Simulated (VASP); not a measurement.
# Young's modulus, Poisson ratio and elastic non-linearity of bcc Mo under [001] stress at PBEsol, strains from −2 % to +2 %

I have to decide how far a single-crystal Mo whisker may be stretched along [001] if it is to serve as a force sensor read with one fixed spring constant. My whisker is 1 µm long, with a square cross-section of 100 nm × 100 nm at rest. It is to work in tension only, which rules out buckling. It must carry at least 30 µN, and the force may depart from the straight small-strain line by at most 5 %. Among the strains that pass, I take the one with the largest force.

The calculation gives the axial stress, the transverse strain and the stored energy of a perfect crystal. Strains and energies are counted from the crystal relaxed with PBEsol, and tension is positive.

## Set-up

The start is an entry of the ASE's table of reference states database. The crystal was relaxed with PBEsol. Strain is imposed along [001]; the strain across the axis is adjusted until the stress across it vanishes, and the atoms are relaxed with PBEsol. VASP 6.6.1, plane waves with PAW, cutoff 450 eV, no spin polarisation, no spin-orbit coupling, k mesh 26×26×26, static lattice. The same in all rows: band gap on the k mesh at PBEsol: 0.000 eV.

Notes on method and selection:

- Runs that did not converge, have known faults or may not be shown are not listed, and runs on Ansatz's PAW sets soft_1 and soft_2 are kept to separate tables.

Columns:

- strain (%): strain along the axis (tension positive).
- transverse strain (%): strain across the axis.
- stress (GPa): stress along the axis, tension positive.
- strain energy (meV/atom): energy per atom above the relaxed crystal.

Input lines of one member:

```
PREC = Accurate
ENCUT = 450
EDIFF = 1E-07
NELM = 120
ISMEAR = 1
SIGMA = 0.15
LREAL = .FALSE.
ALGO = Normal
GGA = PS
NBANDS = 13
LASPH = .TRUE.
LORBIT = 11
KPAR = 2
IBRION = 1
NSW = 25
```

Command (options for logging and memory left out): `mpirun -np 2 vasp_std`

## Computed values

```
member  strain (%)  transverse strain (%)  stress (GPa)  strain energy (meV/atom)
−2 %    −2.0        0.512                  −8.77         8.69
−1.5 %  −1.5        0.381                  −6.52         4.90
−1 %    −1.0        0.253                  −4.30         2.20
−0.5 %  −0.5        0.125                  −2.12         0.57
0 %     0.0         0.000                  0.01          0.00
+0.5 %  0.5         −0.126                 2.07          0.44
+1 %    1.0         −0.251                 4.06          1.86
+1.5 %  1.5         −0.375                 5.99          4.20
+2 %    2.0         −0.503                 7.84          7.44
```

transverse strain (%) against strain (%):

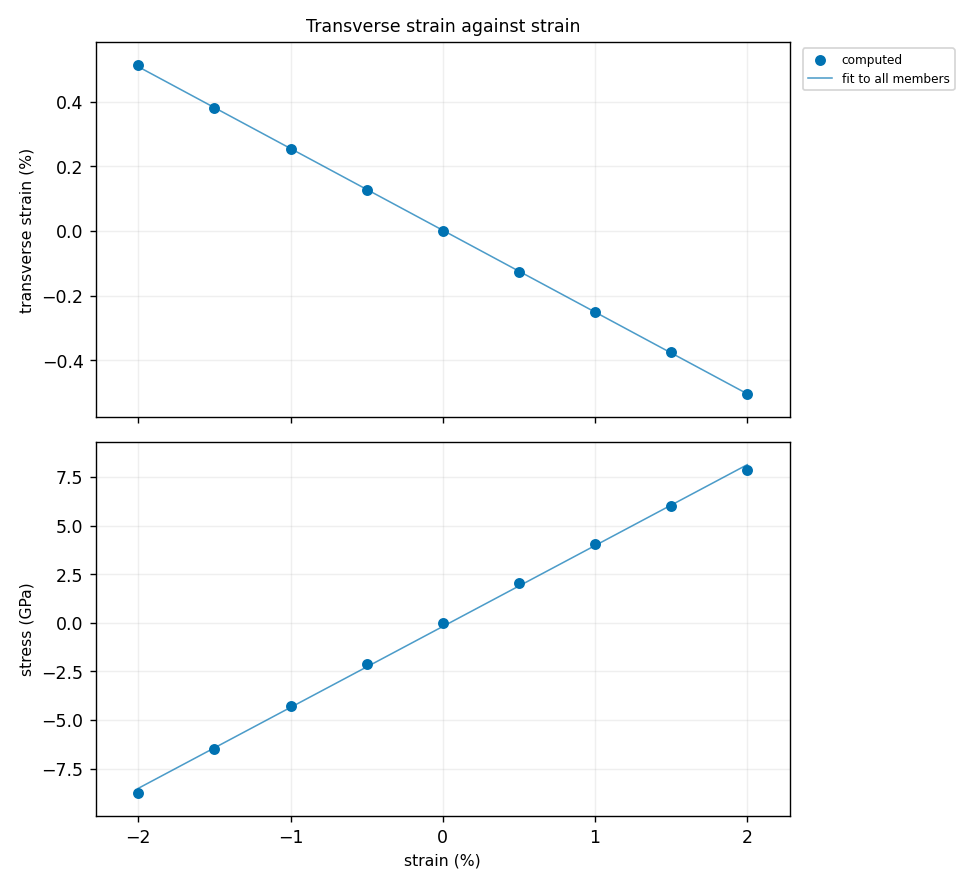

Least-squares fits to the whole series, with x = strain (%); R² and errors in the fitted variable (y, or ln y where the fit is in ln y):

```
y                      members  fit                      R²    rms residual  leave-one-out rms  the same for the mean of the others
transverse strain (%)  9        y = 0.001778 − 0.2529 x  1.00  0.0022        0.0032             0.37
stress (GPa)           9        y = −0.1933 + 4.163 x    1.00  0.17          0.25               6.0
```

## Why the values move as they do

The rows at ±0.5 % give the small-strain moduli. Young's modulus along [001] is (2.07 + 2.12) / 1.0 = 4.19 GPa per % of strain, or 4.19 × 100 = 419 GPa. The Poisson ratio is (0.126 + 0.125) / 1.0 = 0.251.

For a cubic crystal the bulk modulus follows as $B = E/[3(1-2\nu)]$, 419 / (3 × (1 − 2 × 0.251)) = 280 GPa, and $C_{11}-C_{12} = E/(1+\nu)$, 419 / (1 + 0.251) = 335 GPa. Hence $C_{11}$ = 280 + 2 × 335 / 3 = 503 GPa and $C_{12}$ = 280 − 335 / 3 = 168 GPa. Stress along [001] says nothing about $C_{44}$.

Theory gives a reason for the stiffness. Central springs between nearest neighbours alone would leave a bcc crystal with $C_{11} = C_{12}$, a Poisson ratio of 0.5 and no resistance to this strain, since the ⟨111⟩ bonds could keep their length. The resistance must come from more distant neighbours and from directional d bonding, which is strong in Mo because its d band is about half full. With one atom in the primitive cell, no internal displacement can soften the response.

The stress is not quite linear. Stress divided by strain falls from 8.77 / 2.0 = 4.39 GPa per % at −2 % to 7.84 / 2.0 = 3.92 at +2 %. This is the usual anharmonicity of bonding: repulsion steepens on compression, and cohesion weakens on stretching. Against the small-strain line, the stress is off by about 1 % at ±0.5 %, 3 % at ±1 % and 5 to 6 % at ±2 %.

The strain energy, averaged over each pair of opposite strains, grows as the square of the strain: (8.69 + 7.44) / 2 / 4.0 = 2.02 meV/atom per %², and the ±0.5 % pair gives the same coefficient.

## Outliers

Largest departures from the fit to the whole series:

```
member  transverse strain (%)  fit     computed − fit  in rms residuals
−2 %    0.512                  0.508   +0.004          2.0
−0.5 %  0.125                  0.128   −0.003          1.4
+1.5 %  −0.375                 −0.378  +0.003          1.1
0 %     0.000                  0.002   −0.002          0.8
```

The transverse strain at −2 % lies furthest from its line, but by only 0.004 % of strain. I give that no physical cause.

The energies at small strain are odder. The compressed member of each pair lies higher, by 0.57 − 0.44 = 0.13 meV/atom at ±0.5 % and by 8.69 − 7.44 = 1.25 meV/atom at ±2 %, a ratio of 1.25 / 0.13 = 9.6. Cubic anharmonicity alone would give 4³ = 64, so there is also a term linear in strain, although the stress at zero strain is only 0.01 GPa. The likely cause is the fixed plane-wave cutoff: a larger cell holds more plane waves, which lowers its energy slightly. The term cancels in the pair averages, so I trust those, and I take the non-linearity from the stresses.

The intercept of the stress fit, −0.1933 GPa, is no residual stress either. It arises from forcing a straight line through a curved series.

## Choosing a member

The four compressed rows fail because the whisker works in tension, and the unstrained row carries no load. Four rows remain.

The computed stress refers to the deformed cross-section, so the force is $F = \sigma A_0 (1+\varepsilon_t)^2$, with $\varepsilon_t$ the transverse strain as a fraction and $A_0$ = 1.0 × 10⁻¹⁴ m². One GPa on $A_0$ is 10 µN. The fixed spring constant is $k = EA_0/L$ with $L$ = 1 µm. At 10 µN per GPa this is 419 × 10 / 1 = 4190 µN/µm, which is the same number in N/m, and it predicts 4.19 × 10 = 41.9 µN per % of strain.

- At +0.5 % the force is 2.07 × 10 × (1 − 0.126 / 100)² = 20.6 µN. The line gives 41.9 × 0.5 = 20.95 µN, so linearity is good, but the force is too small.
- At +1 % it is 4.06 × 10 × (1 − 0.251 / 100)² = 40.4 µN against 41.9, a departure of 100 × (40.4 − 41.9) / 41.9 = −3.6 %. Both conditions are met.
- At +1.5 % it is 5.99 × 10 × (1 − 0.375 / 100)² = 59.5 µN against 41.9 × 1.5 = 62.9, a departure of 100 × (59.5 − 62.9) / 62.9 = −5.4 %. The linearity condition is narrowly missed.
- At +2 % it is 7.84 × 10 × (1 − 0.503 / 100)² = 77.6 µN against 41.9 × 2 = 83.8, a departure of 100 × (77.6 − 83.8) / 83.8 = −7.4 %, which fails clearly.

I pick +1 %. The whisker is then 10 nm longer and 0.25 nm narrower, and it stores about ½ × 40.4 µN × 10 nm = 0.20 pJ.

PBEsol moduli of transition metals can be wrong by roughly 10 %, and no measured modulus is compared here. An error of that size puts the force at +1 % between 36 and 44 µN, still above 30, while +0.5 % stays below it. A common scale error cancels in the departure from linearity.

The runner-up is +1.5 %. It would win if the true curvature were a tenth smaller, since 5.4 × 0.9 = 4.9 %, or if I allowed 6 %. Reading the sensor with a quadratic calibration would also remove the objection to it.

## Rules of thumb and their limits

Between −2 % and +2 % the transverse strain follows a single Poisson ratio of about 0.25. One Young's modulus describes the stress to about 3 % within ±1 % of strain; beyond that a quadratic term with a negative coefficient is needed, which lowers the tensile stress and raises the compressive one in size.

The omitted effect that outweighs everything in the table is dislocation slip. Ordinary Mo crystals yield at stresses roughly ten times lower than the 4 GPa of my pick, so the design presupposes a nearly defect-free whisker. Thermal softening is also absent from the static lattice. At room temperature it should lower the modulus by roughly a few per cent, similar to the non-linearity at +1 %, so the spring constant should be calibrated at the working temperature.

[Logs are printed without paths, hosts, clocks, repeated set-up lines and the standing remarks that a program may print on its own settings, such as how far it seeks lower states.]
